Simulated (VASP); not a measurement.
# Pressure and energy of TaAs (I4₁md) under even scaling of the cell by up to 6 % in volume, BLYP + D4

We calculate the pressure and the energy of TaAs in its polar tetragonal structure (I4₁md) as the cell is scaled evenly about its equilibrium volume, with BLYP + D4 and a static lattice. The volume change is measured from the minimum of the fitted energy curve, 17.78 Å³ per atom. The pressure comes from the stress tensor and is positive in compression; the energy is counted per atom from the lowest point of the series. TaAs is a semimetal of interest for transport and optical devices, where films and contacts are often strained. The slope of pressure against volume says how much stress a given change of volume costs, and its curvature says how far a single elastic constant can be used.

## Computational details

A cell from the Materials Project database, relaxed at this level and then scaled evenly, fractional positions kept. VASP 6.6.1, plane waves with PAW, BLYP + D4, cutoff 400 eV, k mesh 9×9×9, no spin polarisation, no spin-orbit coupling, static lattice. A Birch-Murnaghan fit to the energies has its minimum at 17.78 Å³ per atom.

Notes on method and selection:

- The pressure is that of a finite plane-wave basis, so it need not vanish exactly at the minimum of the energy.
- Only series whose fit has its minimum inside the range and an error under 0.5 meV per atom are shown.
- Where rows or columns differ in functional or spin-orbit coupling, non-spherical gradient terms in the PAW spheres (LASPH) may be on in some and off in others.
- Runs that did not converge, have known faults or may not be shown are not listed, and runs on Ansatz's PAW sets soft_1 and soft_2 are kept to separate tables.

Columns:

- volume change (%): volume relative to the fitted equilibrium volume.
- pressure (GPa): pressure from the stress tensor (positive: compressed).
- energy (meV/atom): energy per atom above the lowest point of the series.

Input lines of one member:

```
PREC = Accurate
ENCUT = 400
EDIFF = 1E-06
NELM = 100
ISMEAR = 0
SIGMA = 0.05
LREAL = .FALSE.
ALGO = Normal
GGA = B5
ALDAX = 1
AGGAX = 1
AGGAC = 1
ALDAC = 0
IVDW = 13
VDW_S6 = 1
```

Command (options for logging and memory left out): `mpirun -np 2 vasp_std`

## Numbers

| member | volume change (%) | pressure (GPa) | energy (meV/atom) |
| --- | --- | --- | --- |
| 16.71 Å³ | −6.04 | 12.24 | 38.9 |
| 17.06 Å³ | −4.05 | 7.72 | 16.8 |
| 17.42 Å³ | −2.05 | 3.67 | 4.1 |
| 17.77 Å³ | −0.05 | ? | ? |
| 18.13 Å³ | 1.95 | −3.22 | 3.5 |
| 18.48 Å³ | 3.95 | −6.13 | 13.8 |
| 18.84 Å³ | 5.95 | −8.74 | 30.3 |

Cells marked ? are withheld until the estimate has been made.

pressure (GPa) against volume change (%), members shown:

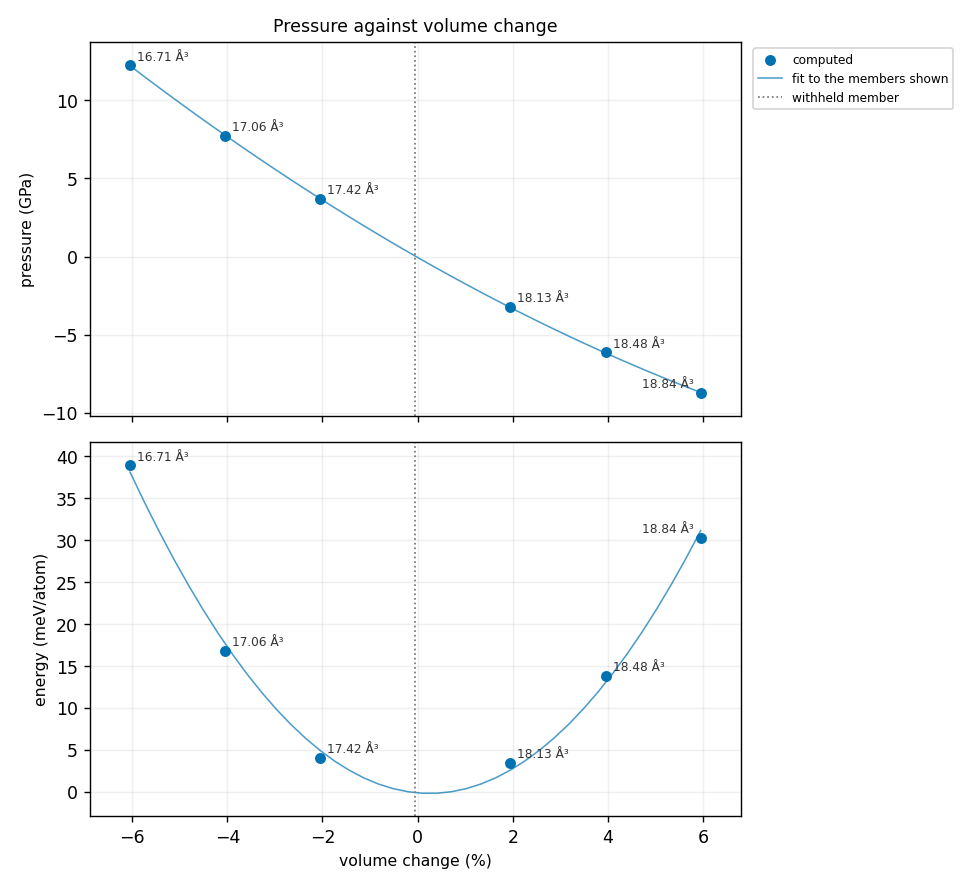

Least-squares fits to the members shown, with x = volume change (%); R² and errors in the fitted variable (y, or ln y where the fit is in ln y):

| y | members | fit | R² | rms residual | leave-one-out rms | the same for the mean of the others |
| --- | --- | --- | --- | --- | --- | --- |
| pressure (GPa) | 6 | y = −0.05666 − 1.738 x + 0.04805 x² | 1.00 | 0.044 | 0.13 | 9.1 |
| energy (meV/atom) | 6 | y = −0.1138 − 0.4885 x + 0.9647 x² | 1.00 | 0.85 | 2.4 | 16 |

## Reading the trend

Among the six cells shown, the pressure falls at every step of expansion, from 12.24 GPa at −6.04 % to −8.74 GPa at 5.95 %. Between the two cells nearest the minimum the slope is (−3.22 − 3.67) / (1.95 + 2.05) = −1.72 GPa per % of volume, which corresponds to a bulk modulus of 100 × 1.72 = 172 GPa. This holds for even scaling, where the stress along c differs from that in the plane normal to it and the pressure is the mean over the three axes. A cell free to adjust its shape and positions would be somewhat softer.

The curve is not straight. The slope is (7.72 − 12.24) / (6.04 − 4.05) = −2.27 GPa per % at the compressed end and (−8.74 + 6.13) / (5.95 − 3.95) = −1.31 GPa per % at the expanded end. The usual reason is that the repulsion between overlapping electron shells grows steeply as the Ta–As bonds shorten, while the bonding attraction changes more slowly. The lattice therefore stiffens in compression and softens in expansion.

The energy shows the same asymmetry, with 38.9 meV per atom at −6.04 % against 30.3 at 5.95 %. It also agrees with the stress through P = −dE/dV, where 1 meV/Å³ is 0.1602 GPa. From 17.06 to 17.42 Å³ the energy gives (16.8 − 4.1) / (17.42 − 17.06) × 0.1602 = 5.65 GPa, and the mean of the two stress pressures is (7.72 + 3.67) / 2 = 5.70 GPa, equal within the rounding of the volumes.

At the largest volumes the sampled k points show a small gap, whereas the bands overlap at equilibrium and below. The pressure has no visible step between these cells, as expected when few carriers are involved. Nor does the gap on the mesh establish an insulator: without spin-orbit coupling the bands of TaAs are known to cross along lines in mirror planes, and a regular mesh can miss such crossings.

## Prediction

Plain estimates from the members shown:

- 17.77 Å³, fit at x = −0.05: 0.03 GPa
- 17.77 Å³, straight-line interpolation between 17.42 Å³ and 18.13 Å³: w = (−0.05 − (−2.05)) / (1.95 − (−2.05)) = 0.500, so 3.67 + 0.500 × (−3.22 − 3.67) = 0.23 GPa

The straight line between the two neighbours gives 0.23 GPa, which is too high because the pressure curve is convex and lies below its chord. We use instead a cubic through the two nearest cells on each side, which are evenly spaced by 2 % about the withheld one:

P = [4 × (3.67 − 3.22) − (7.72 − 6.13)] / 6 = 0.035 GPa.

The same kind of cubic can be tried on shown members. Drawn through the cells at 17.06, 17.42, 18.48 and 18.84 Å³, it gives −0.2 × 7.72 + 0.5 × 3.67 + 1.0 × (−6.13) − 0.3 × (−8.74) = −3.217 GPa at 18.13 Å³, where the table has −3.22. Drawn through those at 16.71, 17.06, 18.13 and 18.48 Å³, it gives −0.3 × 12.24 + 1.0 × 7.72 + 0.5 × (−3.22) − 0.2 × (−6.13) = 3.664 GPa at 17.42 Å³, where the table has 3.67. The misses are below 0.01 GPa.

The result also makes physical sense. The cell is compressed by 0.05 %, which at 1.72 GPa per % would give 0.05 × 1.72 = 0.09 GPa if the pressure vanished at the energy minimum. The cubic lies about 0.05 GPa lower, and a finite plane-wave basis usually shifts the stress pressure in that direction. The neighbouring pressures already contain this shift, so no further correction is added. With the small misses and the rounding of the table, we take an error of 0.01 GPa.

**Committed estimate, 17.77 Å³: pressure = 0.04 ± 0.01 GPa.**

## The withheld result

| member | volume change (%) | pressure (GPa) | energy (meV/atom) |
| --- | --- | --- | --- |
| 17.77 Å³ | −0.05 | 0.04 | 0.0 |

| member | estimate | pressure (GPa) | computed | estimate − computed | miss in error bars |
| --- | --- | --- | --- | --- | --- |
| 17.77 Å³ | committed | 0.04 | 0.04 | 0.00 | 0.0 |
| 17.77 Å³ | fit | 0.03 | 0.04 | −0.01 |  |
| 17.77 Å³ | interpolation | 0.23 | 0.04 | +0.19 |  |

pressure (GPa) against volume change (%):

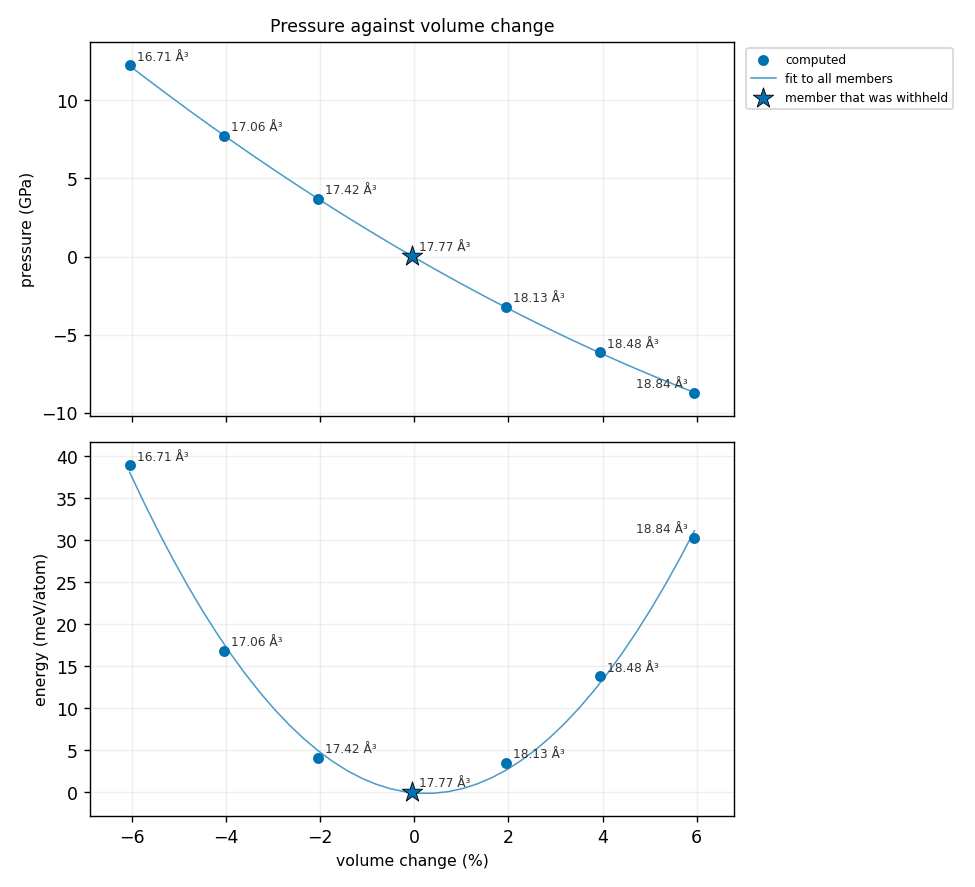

The computed pressure at 17.77 Å³ is 0.04 GPa, equal to our estimate and inside its error bar of 0.01 GPa. The quadratic fit, at 0.03 GPa, did practically as well. The straight line between the neighbours gave 0.23 GPa, too high by 0.19 GPa.

The argument from curvature held. With the quadratic coefficient of the whole series, a chord over two steps of 2 % should lie above the curve at its middle by 0.04793 × 2.00² = 0.19 GPa, which is the miss found. The lattice thus stiffens smoothly in compression through the equilibrium volume.

The pressure is also about 0.05 GPa below the 0.09 GPa expected from the distance to the energy minimum. The sign fits the usual effect of a finite plane-wave basis on the stress, but no second cutoff is shown that would test this cause.

## Where the trend breaks

Least-squares fits to the whole series, with x = volume change (%); R² and errors in the fitted variable (y, or ln y where the fit is in ln y):

| y | members | fit | R² | rms residual | leave-one-out rms | the same for the mean of the others |
| --- | --- | --- | --- | --- | --- | --- |
| pressure (GPa) | 7 | y = −0.05345 − 1.738 x + 0.04793 x² | 1.00 | 0.041 | 0.11 | 8.2 |
| energy (meV/atom) | 7 | y = −0.08477 − 0.4886 x + 0.9636 x² | 1.00 | 0.79 | 2.1 | 16 |

Largest departures from the fit to the whole series:

| member | pressure (GPa) | fit | computed − fit | in rms residuals |
| --- | --- | --- | --- | --- |
| 17.06 Å³ | 7.72 | 7.77 | −0.05 | 1.3 |
| 16.71 Å³ | 12.24 | 12.19 | +0.05 | 1.2 |
| 18.84 Å³ | −8.74 | −8.70 | −0.04 | 1.0 |
| 17.42 Å³ | 3.67 | 3.71 | −0.04 | 1.0 |

No cell stands out: the largest departures from the quadratic fit are 0.05 GPa, or 1.3 rms residuals, in a series that spans 12.24 + 8.74 = 20.98 GPa. Their signs follow a pattern, with the computed pressure above the fit at −6.04 % and below it at −4.05 %, −2.05 % and 5.95 %. This is what a missing cubic term leaves behind, so the departures belong to the form of the fit and not to particular cells.

## Rules of thumb and their limits

Within about 6 % of the equilibrium volume, the pressure of evenly scaled TaAs is a smooth, convex curve. A new volume inside this range can be estimated to about 0.01 GPa from a cubic through four neighbours, and to about 0.1 GPa from the quadratic fit.

Near equilibrium, 1 GPa of compression costs 1 / 1.72 = 0.58 % of the volume, or 0.58 / 3 = 0.19 % of each cell length. This single slope serves to about 2 %: at −2.05 % it gives 2.05 × 1.72 = 3.53 GPa against 3.67 in the table, but at −6.04 % it gives 6.04 × 1.72 = 10.39 GPa against 12.24. These numbers apply to even scaling. A film clamped in its plane and free along its normal needs the separate elastic constants.

No omitted effect is expected to rival the 21 GPa spanned by the table. Lattice vibrations at room temperature would add very roughly 1 GPa at fixed volume. That matters little for the slope, but it exceeds the pressure at 17.77 Å³ many times over, so the zero of pressure belongs to the static lattice at this level.

[Logs are printed without paths, hosts, clocks, repeated set-up lines and the standing remarks that a program may print on its own settings, such as how far it seeks lower states.]
